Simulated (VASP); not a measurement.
# Splitting of the Δ valleys and order of the conduction valleys in Ge under biaxial (001) strain, TB-mBJ with spin-orbit coupling on PBEsol cells

Whether to grow a germanium layer under tension or under compression depends on which conduction valley the electrons should occupy. Strain in the (001) plane makes the normal direction different from the two in-plane axes, so valleys that are equivalent in the cubic crystal may separate. The valley with the lowest energy then sets the gap, the effective mass and whether the gap is direct. The calculation covers in-plane strains from −2 % to +2 %, with tension positive. Level energies are counted from the valence-band top at the zone centre, and the splitting is the energy of the [100] valley less that of the [001] valley.

## Computational details

The start is a typed prototype cell. The crystal was relaxed with PBEsol. Equal strain is imposed in the (001) plane; the strain along the normal is adjusted until the normal stress vanishes, and the atoms are relaxed with PBEsol. VASP 6.6.1, plane waves with PAW, cutoff 470 eV, no spin polarisation. Band edges are single points at TB-mBJ with spin-orbit coupling on these cells, k mesh 7×7×7, read on short lines of k points at the zone centre and through the valleys; energies are counted from the valence-band top at the zone centre.  All levels use the PAW data sets made with PBE.

Notes on method and selection:

- A valley's energy from the valence-band top holds the shift of that top as well as the shift of the valley.
- The gap closes at PBEsol in some of these cells, so their relaxation was done on a slightly metallic state, which can put single points off the line.
- The TB-mBJ parameter c is fixed anew from the density of each cell, so it changes along the series.
- Runs that did not converge, have known faults or may not be shown are not listed, and runs on Ansatz's PAW sets soft_1 and soft_2 are kept to separate tables.

Columns:

- strain (%): strain in the plane (tension positive).
- splitting (eV): valley along [100] less valley along [001].
- Δ [001] (eV): minimum of the conduction band along Γ–X in the [001] direction.
- Δ [100] (eV): minimum of the conduction band along Γ–X in the [100] direction.
- L [111] (eV): conduction level at L along [111].
- Γ level (eV): lowest conduction level at Γ.

Input lines of one member:

```
PREC = Accurate
ENCUT = 470
EDIFF = 1E-06
NELM = 150
ISMEAR = 0
SIGMA = 0.02
LREAL = .FALSE.
ALGO = Normal
METAGGA = MBJ
LASPH = .TRUE.
LNONCOLLINEAR = .TRUE.
NBANDS = 38
GGA_COMPAT = .FALSE.
LSORBIT = .TRUE.
KPAR = 2
```

Command (options for logging and memory left out): `mpirun -np 2 vasp_ncl`

## The series

| member | strain (%) | splitting (eV) | Δ [001] (eV) | Δ [100] (eV) | L [111] (eV) | Γ level (eV) |
| --- | --- | --- | --- | --- | --- | --- |
| −2 % | −2.0 | −0.322 | 1.010 | 0.688 | 0.565 | 0.761 |
| −1.5 % | −1.5 | −0.239 | 0.992 | 0.753 | 0.584 | 0.732 |
| −1 % | −1.0 | −0.158 | 0.973 | 0.816 | 0.599 | 0.701 |
| −0.5 % | −0.5 | −0.081 | 0.957 | 0.876 | 0.607 | 0.662 |
| 0 % | 0.0 | 0.002 | 0.936 | 0.938 | 0.615 | 0.632 |
| +0.5 % | 0.5 | 0.086 | 0.862 | 0.948 | 0.569 | 0.548 |
| +1 % | 1.0 | 0.166 | 0.784 | 0.950 | 0.513 | 0.456 |
| +1.5 % | 1.5 | 0.247 | 0.703 | 0.950 | 0.452 | 0.361 |
| +2 % | 2.0 | 0.327 | 0.621 | 0.948 | 0.388 | 0.264 |

splitting (eV) against strain (%):

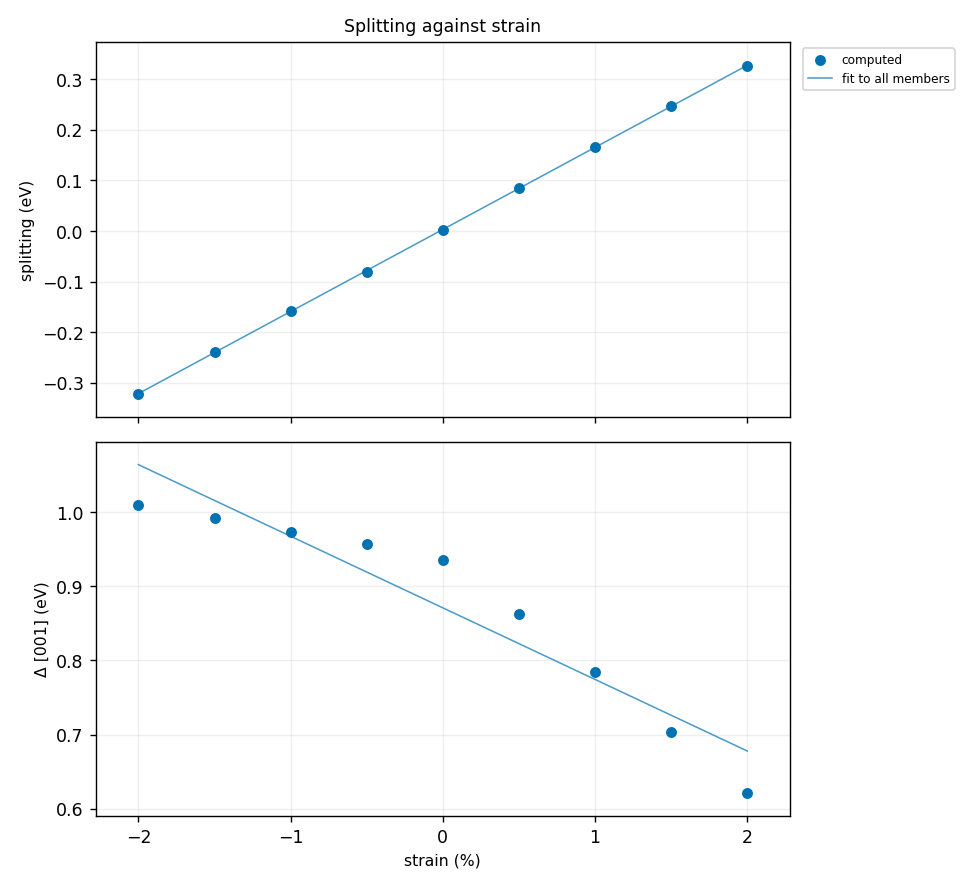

Least-squares fits to the whole series, with x = strain (%); R² and errors in the fitted variable (y, or ln y where the fit is in ln y):

| y | members | fit | R² | rms residual | leave-one-out rms | the same for the mean of the others |
| --- | --- | --- | --- | --- | --- | --- |
| splitting (eV) | 9 | y = 0.003111 + 0.1623 x | 1.00 | 0.0014 | 0.0017 | 0.24 |
| Δ [001] (eV) | 9 | y = 0.8709 − 0.09653 x | 0.91 | 0.040 | 0.055 | 0.15 |

## Interpretation

The splitting rises in every step, from −0.322 eV at −2 % to 0.327 eV at +2 %. Compression therefore favours the in-plane Δ valleys, [100] and [010], and tension favours the [001] valley. Neither kind is the lowest conduction level in any row. That is L from −2 % to 0 %, and Γ in the four rows under tension.

The splitting follows from three assumptions.

1. The in-plane strain is e∥ = x/100, with x in per cent. Because the normal stress vanishes, the normal strain is e⊥ = −κ e∥, where κ = 2C₁₂/C₁₁ is set by the elastic constants.
2. A valley along the unit vector n shifts linearly with strain: δE = Ξd (2e∥ + e⊥) + Ξu (n·ε·n). The first term depends on the volume change alone, the second on the stretch along the valley's own axis.
3. All valleys are counted from the same valence-band top.

For the [100] valley n·ε·n is e∥, and for the [001] valley it is e⊥. In the difference, the volume term and the reference cancel:

S = S₀ + Ξu (e∥ − e⊥) = S₀ + s x, with s = Ξu (1 + κ)/100.

The small constant S₀ allows for the cell without in-plane strain being very slightly tetragonal. The fitted slope of 0.1623 eV per % gives Ξu (1 + κ) = 100 × 0.1623 = 16.23 eV. With κ roughly 0.8, as is usual for semiconductors of this structure, Ξu is roughly 9 eV. Its positive sign means that stretching the crystal along a valley's axis raises that valley relative to the others.

The same formula shows why the L valleys stay together. For each of the four ⟨111⟩ directions n·ε·n equals (2e∥ + e⊥)/3, so (001) strain shifts them all equally, and the single L column stands for all four.

## Testing the model

The two constants are fixed on the members 0 % and +1 %:

S₀ = 0.002 eV

s = (0.166 − 0.002) / 1.0 = 0.164 eV per %

Four other members then follow:

- −2 %: 0.002 + 0.164 × (−2.0) = −0.326 eV; the table has −0.322 eV.
- −1 %: 0.002 + 0.164 × (−1.0) = −0.162 eV; the table has −0.158 eV.
- +0.5 %: 0.002 + 0.164 × 0.5 = 0.084 eV; the table has 0.086 eV.
- +2 %: 0.002 + 0.164 × 2.0 = 0.330 eV; the table has 0.327 eV.

Over all seven members not used to fix the constants, the largest miss is 0.005 eV, at −1.5 %, and the rms miss is 0.003 eV. Predicting each member from the mean of the others misses by 0.24 eV. Two calculations at small strain are thus enough to give the splitting over the whole tabled range.

The splitting ranks the Δ valleys among themselves; their place relative to L and Γ has to be read from the levels. At −2 % the lower Δ valleys lie 0.688 − 0.565 = 0.123 eV above L, compared with 0.938 − 0.615 = 0.323 eV at zero strain, so compression brings them closer without making them lowest. At +2 % the lower Δ valley is [001], and it lies 0.621 − 0.264 = 0.357 eV above Γ.

## Where the trend breaks

Largest departures from the fit to the whole series:

| member | splitting (eV) | fit | computed − fit | in rms residuals |
| --- | --- | --- | --- | --- |
| −0.5 % | −0.081 | −0.078 | −0.003 | 2.1 |
| +0.5 % | 0.086 | 0.084 | +0.002 | 1.2 |
| −1.5 % | −0.239 | −0.240 | +0.001 | 1.0 |
| −1 % | −0.158 | −0.159 | +0.001 | 0.9 |

The linear law fails when it is carried over from the splitting to a single level. A straight line through Δ [001] leaves an rms residual of 0.040 eV, against 0.0014 eV for the splitting, because the level bends at zero strain. It falls by 0.957 − 0.936 = 0.021 eV from −0.5 % to 0 %, and by 0.936 − 0.862 = 0.074 eV from 0 % to +0.5 %.

The other levels bend by nearly the same amount. The bend is measured by twice the level at 0 % less the levels at −0.5 % and +0.5 %:

- Δ [001]: 2 × 0.936 − 0.957 − 0.862 = 0.053 eV
- Δ [100]: 2 × 0.938 − 0.876 − 0.948 = 0.052 eV
- L: 2 × 0.615 − 0.607 − 0.569 = 0.054 eV
- Γ: 2 × 0.632 − 0.662 − 0.548 = 0.054 eV

A bend shared by four different conduction states points to their common reference. For a single level to be linear, the valence-band top would also have to move linearly with strain, and it does not. Strain of either sign splits that top, and the upper branch, from which the levels are counted, moves up relative to the average of the two. This lowers every tabled level on both sides of zero and cancels in the splitting. The TB-mBJ parameter c also changes along the series, but a smooth change in c would add a slope or a gentle curve, not a kink at zero.

## Closing remarks

From −2 % to +2 % the Δ splitting is linear in strain, at about 0.16 eV per %. No omitted effect is expected to rival its range of 0.327 + 0.322 = 0.649 eV. For the choice of growth, these calculations have compression keep the electrons at L and tension bring them to Γ; neither puts them in the Δ valleys within this range.

The order of L and Γ is less secure, since only 0.017 eV separates them at zero strain. Germanium is known to have L more clearly below Γ, and to need more tension than +0.5 % before its gap becomes direct. TB-mBJ on these PBEsol cells therefore places Γ too low relative to L, by an error of roughly 0.1 eV, and the change of order comes too early. The margin of 0.123 eV that keeps the Δ valleys above L at −2 % is no larger than errors of this kind, so that order is not secure either. Lattice vibrations, also left out, would lower the gaps by roughly 0.1 eV at room temperature, with a smaller effect on the differences between valleys.

[Logs are printed without paths, hosts, clocks, repeated set-up lines and the standing remarks that a program may print on its own settings, such as how far it seeks lower states.]
